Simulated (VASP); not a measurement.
# Tantalum under biaxial strain in the (110) plane: normal strain, stress, strain energy and elastic moduli with PBEsol

A tantalum film stretched by 1 % in its (110) plane resists less than the same film compressed by 1 %, although linear elasticity makes the two stresses equal in size. The problem is which sign of strain suits a device, and whether one modulus is enough to design it.

The brief is a coherent (110) film, 10 nm thick and free to relax along its normal, with an in-plane strain of at least 1 % of either sign. The film force per width, averaged over the two in-plane axes, may not exceed 35 N/m. The strain energy may not exceed 5 meV/atom, and a single modulus must give the stress to within 10 %. Among the rows that pass, the lowest force wins. Strains and energies are calculated with PBEsol relative to the relaxed cubic crystal, and tensile stress is positive.

## Calculations

The start is an entry of the ASE's table of reference states database. The crystal was relaxed with PBEsol. Equal strain is imposed in the (110) plane; the strain along the normal is adjusted until the normal stress vanishes, and the atoms are relaxed with PBEsol. VASP 6.6.1, plane waves with PAW, cutoff 450 eV, no spin polarisation, no spin-orbit coupling, k mesh 25×25×25, static lattice. The same in all rows: band gap on the k mesh at PBEsol: 0.000 eV.

Notes on method and selection:

- Runs that did not converge, have known faults or may not be shown are not listed, and runs on Ansatz's PAW sets soft_1 and soft_2 are kept to separate tables.

Columns:

- strain (%): strain in the plane (tension positive).
- normal strain (%): strain along the normal.
- stress (GPa): mean of the normal stresses along the two perpendicular in-plane axes, tension positive.
- strain energy (meV/atom): energy per atom above the relaxed crystal.

## Data

```
member  strain (%)  normal strain (%)  stress (GPa)  strain energy (meV/atom)
−2 %    −2.0        2.152              −6.47         13.72
−1.5 %  −1.5        1.603              −4.73         7.52
−1 %    −1.0        1.072              −3.05         3.21
−0.5 %  −0.5        0.541              −1.45         0.77
0 %     0.0         0.000              0.01          0.00
+0.5 %  0.5         −0.545             1.37          0.70
+1 %    1.0         −1.058             2.72          2.88
+1.5 %  1.5         −1.566             4.03          6.57
+2 %    2.0         −2.087             5.24          11.64
```

normal strain (%) against strain (%):

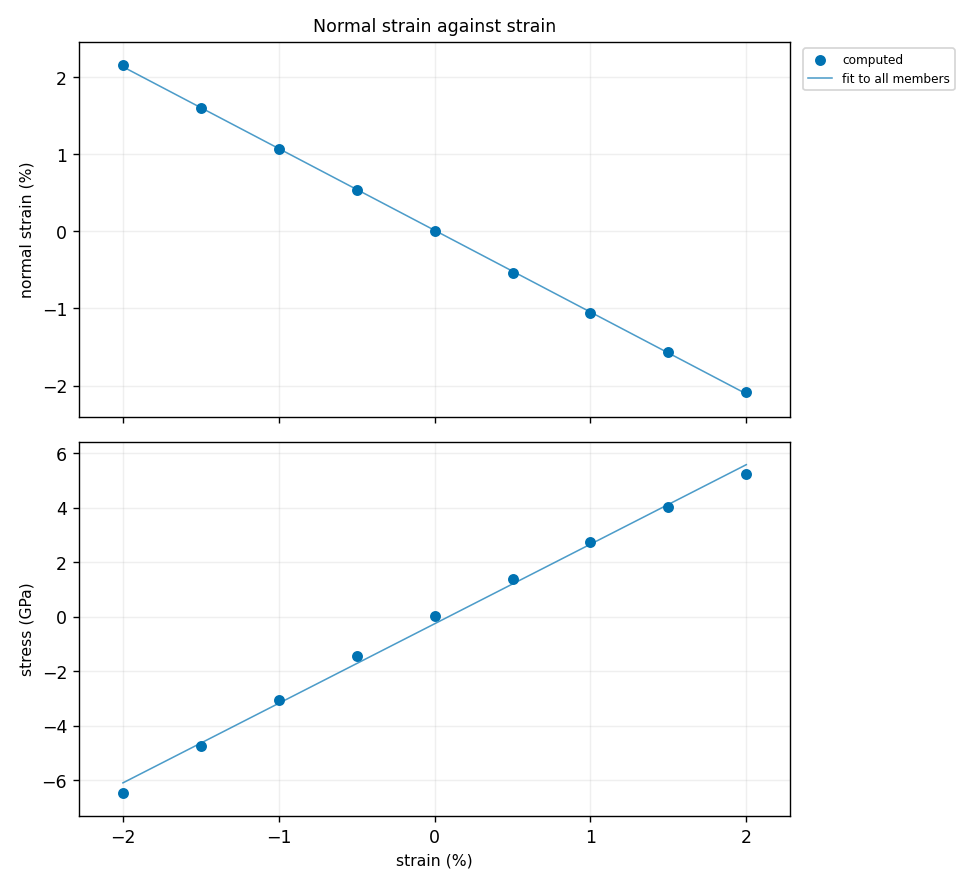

Least-squares fits to the whole series, with x = strain (%); R² and errors in the fitted variable (y, or ln y where the fit is in ln y):

```
y                  members  fit                    R²    rms residual  leave-one-out rms  the same for the mean of the others
normal strain (%)  9        y = 0.01244 − 1.060 x  1.00  0.015         0.020              1.5
stress (GPa)       9        y = −0.2589 + 2.916 x  1.00  0.23          0.32               4.2
```

## Why the values move as they do

In-plane tension thins the crystal along the normal, by 1.060 % per 1 % in the fit to all rows. The volume still grows, to first order by 2 − 1.060 = 0.94 % per 1 %, because the crystal balances its resistance to volume change against its resistance to shape change. For zero normal stress,

r = (2B − G)/(B + G), with G = C₄₄ + (C₁₁ − C₁₂)/6,

where r is minus the ratio of normal to in-plane strain and B is the bulk modulus. An incompressible crystal would have r = 2.

The ±1 % rows give r = (1.058 + 1.072)/2 = 1.065 and a mean biaxial modulus M = (2.72 + 3.05)/0.02 = 288.5 GPa. With 2 − 1.065 = 0.935 and 1 + 1.065 = 2.065, these give

- B = 2M/[3(2 − r)] = 2 × 288.5/(3 × 0.935) = 206 GPa
- G = B(2 − r)/(1 + r) = 206 × 0.935/2.065 = 93 GPa

The three cubic constants do not follow separately, since that takes the difference between the two in-plane stresses and the table gives their mean.

The stiffness falls at every step from compression to tension. The stress changes by 6.47 − 4.73 = 1.74 GPa between −2 % and −1.5 %, but by only 5.24 − 4.03 = 1.21 GPa between +1.5 % and +2 %. The strain energy shows the same asymmetry: 13.72/11.64 = 1.18 between −2 % and +2 %. This is the sign expected of anharmonic bonding, in which repulsion steepens as atoms approach and the restoring force weakens as they separate.

With x the strain in %, the ±1 % rows give a linear coefficient of (2.72 + 3.05)/2 = 2.885 and a quadratic one of (2.72 − 3.05)/2 = −0.165, so that σ = 2.885 x − 0.165 x² in GPa. This misses the other seven rows by 0.06 GPa rms, against 4.2 GPa when each row is estimated by the mean of the others, and its largest miss is 0.13 GPa at +2 %.

## Where the trend breaks

Largest departures from the fit to the whole series:

```
member  normal strain (%)  fit     computed − fit  in rms residuals
+0.5 %  −0.545             −0.518  −0.027          1.9
+2 %    −2.087             −2.108  +0.021          1.4
−2 %    2.152              2.132   +0.020          1.3
0 %     0.000              0.012   −0.012          0.8
```

The +0.5 % row departs most from the normal-strain line, by −0.027 %, which is 5 % of its own value. It belongs to a small irregularity around zero strain. The ±0.5 % rows give r = (0.541 + 0.545)/(2 × 0.5) = 1.086 and M = (1.37 + 1.45)/0.01 = 282 GPa, hence B = 206 GPa as before but G = 90 GPa instead of 93 GPa. Only the resistance to shape change is affected. Incomplete sampling of the Fermi surface by the k mesh is a possible cause. The rows remain usable, with G uncertain by a few GPa.

The straight-line fit to the stress gives −0.26 GPa at zero strain, where the calculation gives 0.01 GPa. That offset comes from forcing a line through curved data, so the unstrained row is sound.

## Meeting the brief

**Strain.** The rows at 0 and ±0.5 % fall short of the required 1 %.

**Force.** The force per width is F = |σ| t with t = 10 nm, and 1 GPa × 1 nm = 1 N/m.

- +1 %: 2.72 × 10 = 27.2 N/m
- −1 %: 3.05 × 10 = 30.5 N/m
- +1.5 %: 4.03 × 10 = 40.3 N/m
- −1.5 %: 4.73 × 10 = 47.3 N/m

The ±2 % rows lie higher still, at 5.24 × 10 = 52.4 N/m in tension and 6.47 × 10 = 64.7 N/m in compression. Only the ±1 % rows stay below 35 N/m.

**Energy.** The same two rows pass, with 2.88 meV/atom in tension and 3.21 meV/atom in compression. The next candidate, +1.5 %, already stores 6.57 meV/atom.

**Single modulus.** M predicts 288.5 × 0.01 = 2.885 GPa at 1 %. This is 0.165/2.72 = 6 % too large in tension and 0.165/3.05 = 5 % too small in compression. With the modulus from the ±0.5 % rows the errors are 4 % and 8 %, so both rows pass either way.

**Error of the level.** Elastic moduli of metals from PBEsol are typically good to roughly 10 %. That puts the force at 24 to 30 N/m for +1 % and 27 to 34 N/m for −1 %, both within the limit. The ranges overlap, but the error is largely common to two states of one crystal, and the ratio 30.5/27.2 = 1.12 should largely survive it.

**Pick.** The choice is +1 %, with −1 % as runner-up. The chosen film becomes 10 × 1.058/100 = 0.11 nm thinner.

**What would overturn it.** The forces above are those of the film's interior. Surfaces and the interface add a stress of their own, which for clean metal surfaces is usually tensile. It raises the total force of the stretched film and lowers that of the compressed one. A net tensile contribution above (30.5 − 27.2)/2 = 1.65 N/m would reverse the order. Two metal surfaces can supply that much, so the pick rests on the interior stress alone. A limit set on each axis separately would also be stricter than the one used here, because the stress along [1−10] exceeds that along [001].

## Rules of thumb and their limits

One modulus of 288.5 GPa gives the stress to about 6 % in the rows up to ±1 %, to 7 to 9 % at ±1.5 %, and to 10 to 11 % at ±2 %. It overestimates the stress in tension and underestimates it in compression. Where that matters, the quadratic term should be kept.

The largest omitted effect is plastic relaxation. The calculation strains a perfect crystal, whereas a real film above its critical thickness forms dislocations that take up part of the imposed strain. This lowers the magnitude of the stress for either sign, possibly by more than half, which far exceeds the difference of 0.33 GPa between the +1 % and −1 % rows.

[Logs are printed without paths, hosts, clocks, repeated set-up lines and the standing remarks that a program may print on its own settings, such as how far it seeks lower states.]
